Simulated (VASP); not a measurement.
# Transverse strain, stress and strain energy of zinc-blende BN under uniaxial [111] stress with LDA

We calculate how zinc-blende BN responds when it is stretched or compressed along [111] while the stress across that axis is held at zero. The imposed strain runs from −2 % to +2 %, and strains and energies are measured from the crystal relaxed with LDA. Three questions are addressed: how much the crystal contracts or widens sideways, which elastic moduli follow, and at what strain a constant modulus ceases to describe the stress. The answers matter for hard coatings and for BN films held under strain by a substrate, where stress is usually inferred from a measured strain through linear elasticity. All values refer to a static lattice, without thermal or zero-point motion.

## Systems and settings

The start is a typed prototype cell. The crystal was relaxed with LDA. Strain is imposed along [111]; the strain across the axis is adjusted until the stress across it vanishes, and the atoms are relaxed with LDA. VASP 6.6.1, plane waves with PAW, cutoff 600 eV, no spin polarisation, no spin-orbit coupling, k mesh 14×14×14, static lattice.

Notes on method and selection:

- Runs that did not converge, have known faults or may not be shown are not listed, and runs on Ansatz's PAW sets soft_1 and soft_2 are kept to separate tables.

Columns:

- strain (%): strain along the axis (tension positive).
- gap (eV): band gap on the k mesh at LDA.
- transverse strain (%): strain across the axis.
- stress (GPa): stress along the axis, tension positive.
- strain energy (meV/atom): energy per atom above the relaxed crystal.

Input lines of one member:

```
PREC = Accurate
ENCUT = 600
EDIFF = 1E-07
NELM = 120
ISMEAR = 0
SIGMA = 0.02
LREAL = .FALSE.
ALGO = Normal
GGA = CA
NBANDS = 10
LASPH = .TRUE.
LORBIT = 11
KPAR = 3
IBRION = 1
NSW = 25
```

Command (options for logging and memory left out): `mpirun -np 3 vasp_std`

## Computed values

| member | strain (%) | gap (eV) | transverse strain (%) | stress (GPa) | strain energy (meV/atom) |
| --- | --- | --- | --- | --- | --- |
| −2 % | −2.0 | 4.283 | 0.1683 | −21.64 | 7.933 |
| −1.5 % | −1.5 | 4.311 | 0.1244 | −16.03 | 4.477 |
| −1 % | −1.0 | 4.333 | 0.0816 | −10.54 | 2.020 |
| −0.5 % | −0.5 | 4.355 | 0.0418 | −5.21 | 0.5390 |
| 0 % | 0.0 | 4.375 | ? | ? | ? |
| +0.5 % | 0.5 | 4.358 | −0.0354 | 5.02 | 0.3877 |
| +1 % | 1.0 | 4.342 | −0.0717 | 9.92 | 1.660 |
| +1.5 % | 1.5 | 4.324 | −0.1065 | 14.67 | 3.796 |
| +2 % | 2.0 | 4.306 | −0.1392 | 19.26 | 6.767 |

Cells marked ? are withheld until the estimate has been made.

Least-squares fits to the members shown, with x = strain (%); R² and errors in the fitted variable (y, or ln y where the fit is in ln y):

| y | members | fit | R² | rms residual | leave-one-out rms | the same for the mean of the others |
| --- | --- | --- | --- | --- | --- | --- |
| transverse strain (%) | 8 | y = 0.007913 − 0.07688 x | 1.00 | 0.0044 | 0.0064 | 0.12 |
| stress (GPa) | 8 | y = −0.5688 + 10.23 x | 1.00 | 0.42 | 0.61 | 16 |

## Interpretation

The crystal widens under compression and narrows under tension, but only slightly. Between −0.5 % and +0.5 % the Poisson ratio is (0.0418 + 0.0354) / 1.0 = 0.077. Over the same interval Young's modulus along [111] is (5.02 + 5.21) / 0.010 = 1023 GPa.

For a cubic crystal these two numbers fix two further moduli. The bulk modulus is $B = E/[3(1-2\nu)]$. With 1 − 2 × 0.077 = 0.846 this gives 1023 / (3 × 0.846) = 403 GPa. The shear modulus is $C_{44} = E/[2(1+\nu)]$. With 1 + 0.077 = 1.077 this gives 1023 / (2 × 1.077) = 475 GPa, which includes the relaxation of the two atoms against each other along the axis. That $C_{44}$ exceeds $B$ fits a network of directional covalent bonds. One bond in four lies along [111] and the other three are inclined to it; the resistance of the bond angles to bending keeps the inclined bonds from folding inwards when the crystal is stretched.

Linear elasticity fails gradually. The ratio of stress to strain is 21.64 / 0.020 = 1082 GPa at −2 % and 19.26 / 0.020 = 963 GPa at +2 %, about 6 % to either side of the central modulus. At ±0.5 % the departure is about 2 %. The sign is that of ordinary bond anharmonicity: a shortened bond stiffens and a lengthened one softens.

The strain energy is also larger under compression, but its asymmetry has a second source. The ratio of compressive to tensile energy is 7.933 / 6.767 = 1.17 at 2 % and 0.5390 / 0.3877 = 1.39 at 0.5 %, whereas anharmonicity alone would make it approach one at small strain. The energy minimum therefore lies slightly on the tensile side of the reference cell. A likely cause is the finite plane-wave basis, which makes a cell relaxed on its stress a little smaller than the cell of lowest energy. The moduli above come from stresses and are hardly affected.

## Predicting the missing value

Plain estimates from the members shown:

- 0 %, fit at x = 0.0: 0.0079 %
- 0 %, straight-line interpolation between −0.5 % and +0.5 %: w = (0.0 − (−0.5)) / (0.5 − (−0.5)) = 0.500, so 0.0418 + 0.500 × (−0.0354 − 0.0418) = 0.0032 %

The member at 0 % is the reference state itself. With no strain imposed along the axis, a cubic crystal relaxed to zero stress has no reason to change its width, so the expected transverse strain is zero.

Both plain estimates lie above this for a known reason. The transverse strain curves upwards with imposed strain, and a straight line through points on both sides passes above the middle of such a curve. The fit over the full range, 0.0079 %, suffers more than the interpolation between the nearest neighbours, 0.0032 %.

The curvature can be removed by averaging members of opposite strain, which cancels the linear part. The averages are (0.0816 − 0.0717) / 2 = 0.00495 % at ±1 % and (0.1683 − 0.1392) / 2 = 0.01455 % at ±2 %. If they grow as the square of the strain, the value left at zero is 0.00495 − (0.01455 − 0.00495) / 3 = 0.00175 %. The coefficient of the square is (0.01455 − 0.00495) / 3 = 0.0032. At ±1.5 %, where the square is 1.5 × 1.5 = 2.25, the same curve gives 0.00175 + 2.25 × 0.0032 = 0.00895 %, equal to the average of the two members there.

This small remainder may reflect a residual stress in the reference cell, or the tolerance to which the transverse stress was brought to zero. It would appear at 0 % only if the width was adjusted again in that run. We therefore keep the value required by the reference state and take the size of the remainder, rounded to 0.002 %, as the error.

**Committed estimate, 0 %: transverse strain = 0.000 ± 0.002 %.**

## The withheld result

| member | strain (%) | gap (eV) | transverse strain (%) | stress (GPa) | strain energy (meV/atom) |
| --- | --- | --- | --- | --- | --- |
| 0 % | 0.0 | 4.375 | 0.0035 | −0.02 | 2.00×10⁻⁵ |

| member | estimate | transverse strain (%) | computed | estimate − computed | miss in error bars |
| --- | --- | --- | --- | --- | --- |
| 0 % | committed | 0.0000 | 0.0035 | −0.0035 | 1.8 |
| 0 % | fit | 0.0079 | 0.0035 | +0.0044 |  |
| 0 % | interpolation | 0.0032 | 0.0035 | −0.0003 |  |

transverse strain (%) against strain (%):

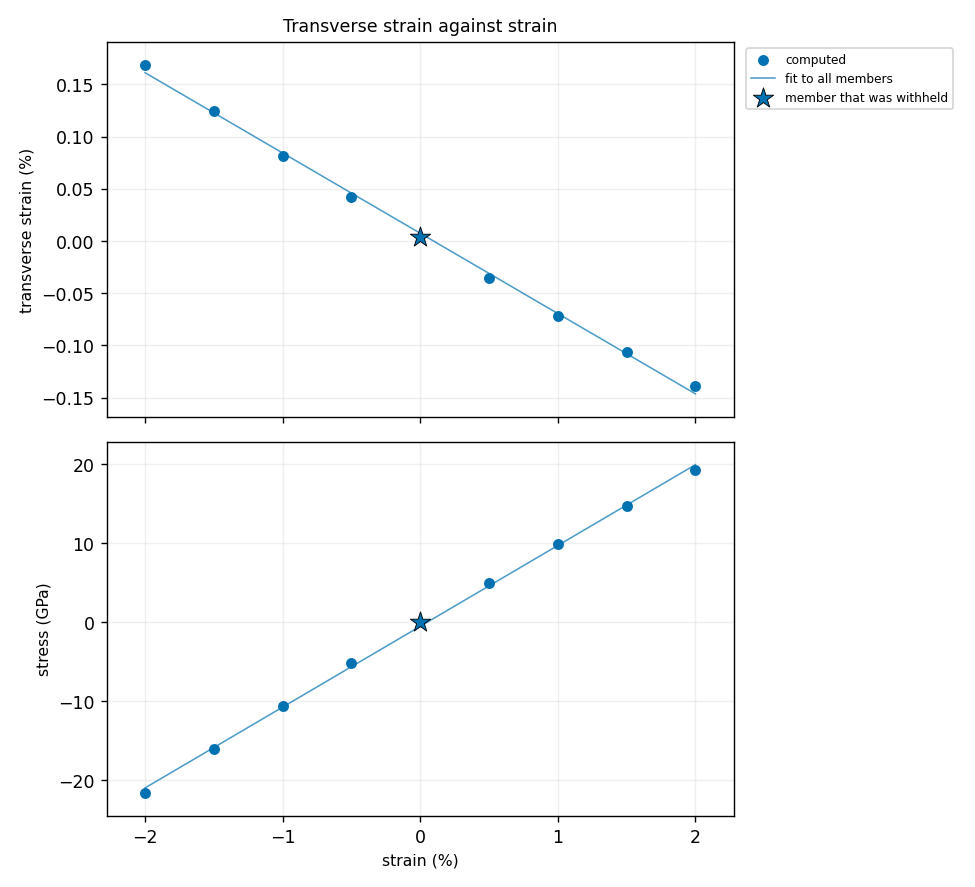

The computed transverse strain at 0 % is 0.0035 %, against our 0.000 ± 0.002 %. The estimate falls outside its error bar, at 1.8 times its width. It is slightly better than the straight-line fit, which misses by 0.0044 %, and clearly worse than the interpolation between the nearest neighbours, which misses by 0.0003 %.

The argument that the reference cell keeps its width failed. The width was adjusted again at zero axial strain, and the reference cell still carried a small residual pressure, so it widened. With the moduli found above, the widening, as a fraction 0.0035 / 100 = 0.000035, changes the stress across the axis by (2 × 403 + 2 × 475 / 3) × 0.000035 = 0.039 GPa. Most of this relieves the residual pressure, and the rest is a slight overshoot within the tolerance of the adjustment.

The interpolation did better because its two neighbours are measured from the same reference cell and carry the same offset. The argument that curvature spoils the full-range fit held. The result concerns the convergence of the reference cell and leaves the elastic mechanism unchanged.

## Residuals

Least-squares fits to the whole series, with x = strain (%); R² and errors in the fitted variable (y, or ln y where the fit is in ln y):

| y | members | fit | R² | rms residual | leave-one-out rms | the same for the mean of the others |
| --- | --- | --- | --- | --- | --- | --- |
| transverse strain (%) | 9 | y = 0.007422 − 0.07688 x | 1.00 | 0.0043 | 0.0063 | 0.11 |
| stress (GPa) | 9 | y = −0.5078 + 10.23 x | 1.00 | 0.43 | 0.61 | 15 |

Largest departures from the fit to the whole series:

| member | transverse strain (%) | fit | computed − fit | in rms residuals |
| --- | --- | --- | --- | --- |
| +2 % | −0.1392 | −0.1463 | +0.0071 | 1.6 |
| −2 % | 0.1683 | 0.1612 | +0.0071 | 1.6 |
| +0.5 % | −0.0354 | −0.0310 | −0.0044 | 1.0 |
| −0.5 % | 0.0418 | 0.0459 | −0.0041 | 0.9 |

The largest departures are those of −2 % and +2 %, both +0.0071 % or 1.6 rms residuals. The members at ±0.5 % lie below the line by about 0.004 %, as does the one at 0 %. Ends above and middle below are the mark of a smooth curve fitted with a straight line, so no single member is at fault.

The curvature means that the sideways response weakens from compression to tension. The size of its slope is (0.1683 − 0.1244) / 0.5 = 0.088 between −2 % and −1.5 %, and (0.1392 − 0.1065) / 0.5 = 0.065 between +1.5 % and +2 %. A possible cause is that stretching the bonds lowers their resistance to a change of length faster than their resistance to bending. The ratio of bulk to shear modulus would then fall, and the Poisson ratio with it, which has the sign seen here.

## Conclusions and limits

From −2 % to +2 % the stress in GPa follows $\sigma = 10.23\,x - 0.30\,x^2$, with $x$ the strain in per cent. The quadratic coefficient comes from the members at ±2 %, (21.64 − 19.26) / 8 = 0.30. The formula meets all nine members within about 0.02 GPa, where the straight line has an rms residual of 0.43 GPa. A constant modulus of 1023 GPa thus misjudges the stress by about 3 % at 1 % strain and 6 % at 2 %.

For the transverse strain, interpolation between the two neighbours works well for all seven inner members. Its largest miss is at −1 %, (0.1244 + 0.0418) / 2 − 0.0816 = 0.0015 %.

The main omitted effect is probably lattice vibration: zero-point motion expands the crystal and should lower the moduli by roughly a few per cent, comparable to the change in the ratio of stress to strain at 1 % strain.

[Logs are printed without paths, hosts, clocks, repeated set-up lines and the standing remarks that a program may print on its own settings, such as how far it seeks lower states.]
